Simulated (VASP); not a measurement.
# Iridium under biaxial (001) strain with PBEsol: normal strain, stress, strain energy and the moduli C₁₁ and C₁₂

The calculation gives the normal strain, in-plane stress and strain energy of fcc iridium when its (001) plane is stretched or compressed by up to 2 %. Strain and stress are measured from the relaxed PBEsol crystal, with tension positive.

The results serve a design brief whose limits are chosen here in round numbers. A coherent Ir (001) film, 10 nm thick, is to offer as large an in-plane stretch as possible to a layer grown on top of it. The film may pull on its support with at most 80 N per metre of width, and it may store at most 1 J of elastic energy per square metre. The candidates are the tabulated strains. The film is treated as bulk iridium with a stress-free normal, so its surfaces and the support enter only through the imposed strain.

## Calculations

The start is an entry of the ASE's table of reference states database. The crystal was relaxed with PBEsol. Equal strain is imposed in the (001) plane; the strain along the normal is adjusted until the normal stress vanishes, and the atoms are relaxed with PBEsol. VASP 6.6.1, plane waves with PAW, cutoff 450 eV, no spin polarisation, no spin-orbit coupling, k mesh 26×26×26, static lattice. The same in all rows: band gap on the k mesh at PBEsol: 0.000 eV.

Notes on method and selection:

- Runs that did not converge, have known faults or may not be shown are not listed, and runs on Ansatz's PAW sets soft_1 and soft_2 are kept to separate tables.

Columns:

- strain (%): strain in the plane (tension positive).
- normal strain (%): strain along the normal.
- stress (GPa): in-plane stress, tension positive.
- strain energy (meV/atom): energy per atom above the relaxed crystal.

Input lines of one member:

```
PREC = Accurate
ENCUT = 450
EDIFF = 1E-07
NELM = 120
ISMEAR = 1
SIGMA = 0.15
LREAL = .FALSE.
ALGO = Normal
GGA = PS
NBANDS = 10
LASPH = .TRUE.
LORBIT = 11
KPAR = 2
IBRION = 1
NSW = 25
```

Command (options for logging and memory left out): `mpirun -np 2 vasp_std`

## Results

| member | strain (%) | normal strain (%) | stress (GPa) | strain energy (meV/atom) |
| --- | --- | --- | --- | --- |
| −2 % | −2.0 | 1.656 | −15.42 | 26.38 |
| −1.5 % | −1.5 | 1.231 | −11.30 | 14.71 |
| −1 % | −1.0 | 0.810 | −7.38 | 6.504 |
| −0.5 % | −0.5 | 0.401 | −3.61 | 1.655 |
| 0 % | 0.0 | 0.000 | 0.00 | 0.04024 |
| +0.5 % | 0.5 | −0.396 | 3.43 | 1.512 |
| +1 % | 1.0 | −0.790 | 6.69 | 5.917 |
| +1.5 % | 1.5 | −1.184 | 9.76 | 13.12 |
| +2 % | 2.0 | −1.578 | 12.65 | 22.96 |

normal strain (%) against strain (%):

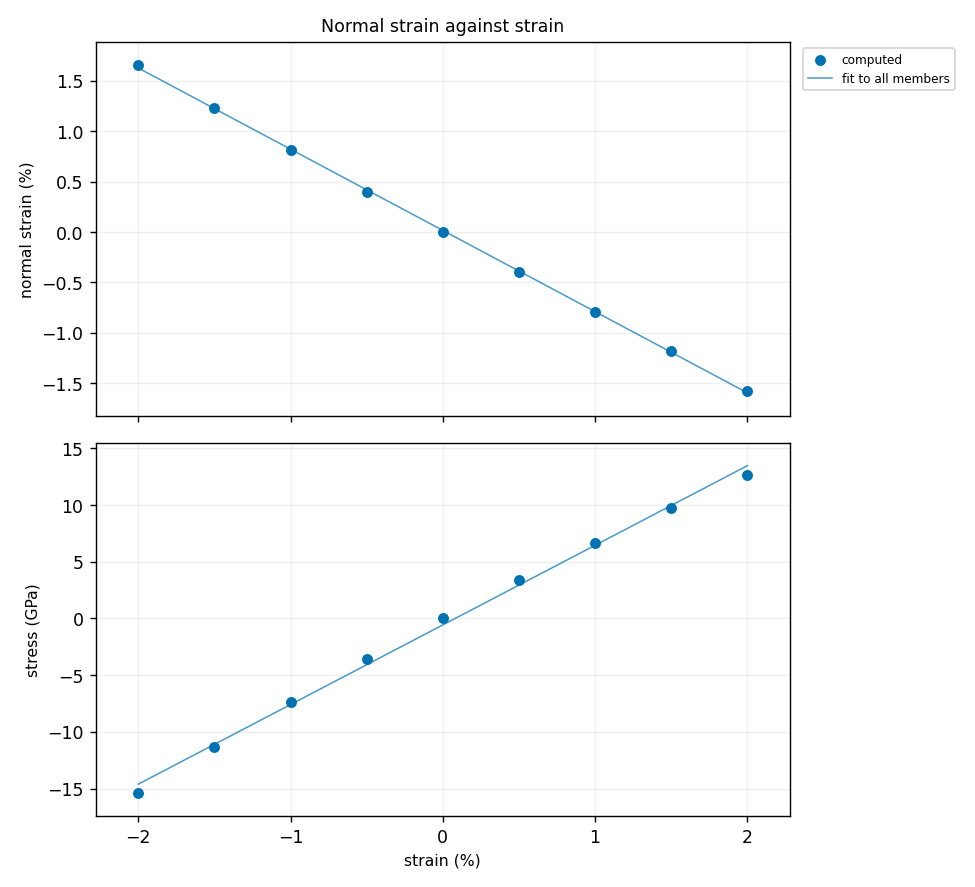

Least-squares fits to the whole series, with x = strain (%); R² and errors in the fitted variable (y, or ln y where the fit is in ln y):

| y | members | fit | R² | rms residual | leave-one-out rms | the same for the mean of the others |
| --- | --- | --- | --- | --- | --- | --- |
| normal strain (%) | 9 | y = 0.01667 − 0.8059 x | 1.00 | 0.015 | 0.021 | 1.2 |
| stress (GPa) | 9 | y = −0.5756 + 7.021 x | 1.00 | 0.51 | 0.72 | 10 |

## Mechanism

Stretching the plane thins the crystal along the normal. Between −0.5 % and +0.5 % the slope is (−0.396 − 0.401) / 1.0 = −0.797. For a cubic crystal with a stress-free normal,

$$\frac{\varepsilon_\perp}{\varepsilon}=-\frac{2C_{12}}{C_{11}},\qquad M=\frac{\sigma}{\varepsilon}=C_{11}+C_{12}-\frac{2C_{12}^2}{C_{11}}.$$

The first relation gives $C_{12}/C_{11}$ = 0.797 / 2 = 0.3985. The same two rows give the biaxial modulus $M$ = (3.43 + 3.61) / 0.010 = 704 GPa. Hence $C_{11}$ = 704 / (1 + 0.3985 − 2 × 0.3985²) = 651 GPa, $C_{12}$ = 0.3985 × 651 = 259 GPa, and the bulk modulus is (651 + 2 × 259) / 3 = 390 GPa. This strain does not probe $C_{44}$.

The thinning has a simple geometric reason. A nearest-neighbour bond between adjacent (001) planes changes in length by about $(\varepsilon+\varepsilon_\perp)/2$. At +1 % this is (1.0 − 0.790) / 2 = 0.105 %, so these bonds keep nearly their old length while the in-plane bonds take the full 1 %.

Stress is not quite proportional to strain. The ±1 % rows give a linear coefficient of (6.69 + 7.38) / 2 = 7.04 and a quadratic one of (6.69 − 7.38) / 2 = −0.345. With $\varepsilon$ in per cent and $\sigma$ in GPa,

$$\sigma = 7.04\,\varepsilon-0.345\,\varepsilon^2$$

reproduces every row to within about 0.05 GPa, whereas the straight-line fit has an rms residual of 0.51 GPa. The negative quadratic term means that the crystal stiffens in compression and softens in tension, as expected when repulsion between atoms rises steeply at short distance. Linear elasticity with $M$ = 704 GPa is therefore wrong by about 2.6 % at ±0.5 %, 5 % at ±1 % and 10 % at ±2 %.

The strain energy, averaged over the two signs of strain and counted from the unstrained row, follows 6.17 $\varepsilon^2$ meV/atom to within 0.3 %, with $\varepsilon$ in per cent. The coefficient comes from the ±1 % rows: (6.504 + 5.917) / 2 − 0.04024 = 6.17.

## Members off the line

Largest departures from the fit to the whole series:

| member | normal strain (%) | fit | computed − fit | in rms residuals |
| --- | --- | --- | --- | --- |
| −2 % | 1.656 | 1.628 | +0.028 | 1.8 |
| −0.5 % | 0.401 | 0.420 | −0.019 | 1.2 |
| +2 % | −1.578 | −1.595 | +0.017 | 1.1 |
| 0 % | 0.000 | 0.017 | −0.017 | 1.1 |

No row breaks the trend. The departures from the straight line for normal strain are positive at both ends and negative near the middle, which is the mark of slight curvature. The fitted stress of −0.58 GPa at zero strain has the same origin; the computed value there is 0.00.

The finite plane-wave basis leaves small inconsistencies between energies and stresses. The unstrained row lies 0.04 meV/atom above the relaxed crystal, probably because the free-cell relaxation kept the plane-wave basis of its starting cell. In addition, integrating the stress formula predicts that +1 % lies 2 × (2/3) × 0.345 × 6.17 / 7.04 = 0.40 meV/atom below −1 %, but the table gives 6.504 − 5.917 = 0.587. The likely cause is Pulay stress: at a fixed cutoff a larger cell receives more plane waves, which lowers its energy slightly, whereas the computed stress is a derivative at fixed basis and misses this contribution. The mismatch is negligible at large strain but reaches several per cent of the energy at ±0.5 %.

## Selection

The brief asks for a stretch, which leaves the four tensile rows. The force per width is $F=\sigma t$, where 1 GPa × 1 nm = 1 N/m. The stored energy per area is

$$U=0.1602\,\frac{E\,t}{V},$$

with $U$ in J/m², $E$ in meV/atom above the unstrained row, $t$ = 10 nm and $V$ in Å³/atom. The volume follows from $E=VM\varepsilon^2$ at 1 % strain: with 1 meV/Å³ = 0.1602 GPa, $V$ = 6.17 × 0.1602 / (704 × 0.0001) = 14.04 Å³/atom. The change in film thickness, at most 1.6 %, is neglected.

- **+0.5 %:** $F$ = 3.43 × 10 = 34.3 N/m; $U$ = 0.1602 × 1.472 × 10 / 14.04 = 0.17 J/m². It passes.
- **+1 %:** $F$ = 6.69 × 10 = 66.9 N/m; $U$ = 0.1602 × 5.877 × 10 / 14.04 = 0.67 J/m². It passes.
- **+1.5 %:** $F$ = 9.76 × 10 = 97.6 N/m; $U$ = 0.1602 × 13.08 × 10 / 14.04 = 1.49 J/m². It fails both limits.
- **+2 %:** $F$ = 12.65 × 10 = 126.5 N/m; $U$ = 0.1602 × 22.92 × 10 / 14.04 = 2.6 J/m². It fails both limits.

The pick is +1 %, and the runner-up is +0.5 %.

PBEsol elastic constants of such metals typically carry an error of roughly 10 %. If the real film were stiffer by that much, +1 % would need 66.9 × 1.1 = 73.6 N/m and would still pass. If it were softer by as much, +1.5 % would need 97.6 × 0.9 = 87.8 N/m and would still fail.

The pick would drop to +0.5 % if the force at +1 % rose by a factor of 80 / 66.9 = 1.20. Surface stress, usually tensile in such metals and roughly a few N/m per face, uses up part of that margin. A thinner film would move the pick the other way: +1.5 % meets both limits once the thickness is below 10 / 1.49 = 6.7 nm, where the energy is the tighter limit.

## Rules of thumb and their limits

Within ±2 %, one modulus and one quadratic term describe the stress. The modulus alone suffices within ±1 % if an error of 5 % is acceptable.

The largest omitted effect is plastic relaxation. The perfect one-atom cell cannot form dislocations, whereas bulk metals commonly yield at stresses of roughly 1 GPa or less, far below the 6.69 GPa computed at +1 %. Thin films sustain more, but at a strain of 1 %, misfit dislocations typically become favourable once the film is thicker than roughly a few nanometres. In a 10 nm film they could remove much of the stress, and with it the stretch that the brief requires. The selection therefore holds only for a film that stays coherent.

[Logs are printed without paths, hosts, clocks, repeated set-up lines and the standing remarks that a program may print on its own settings, such as how far it seeks lower states.]
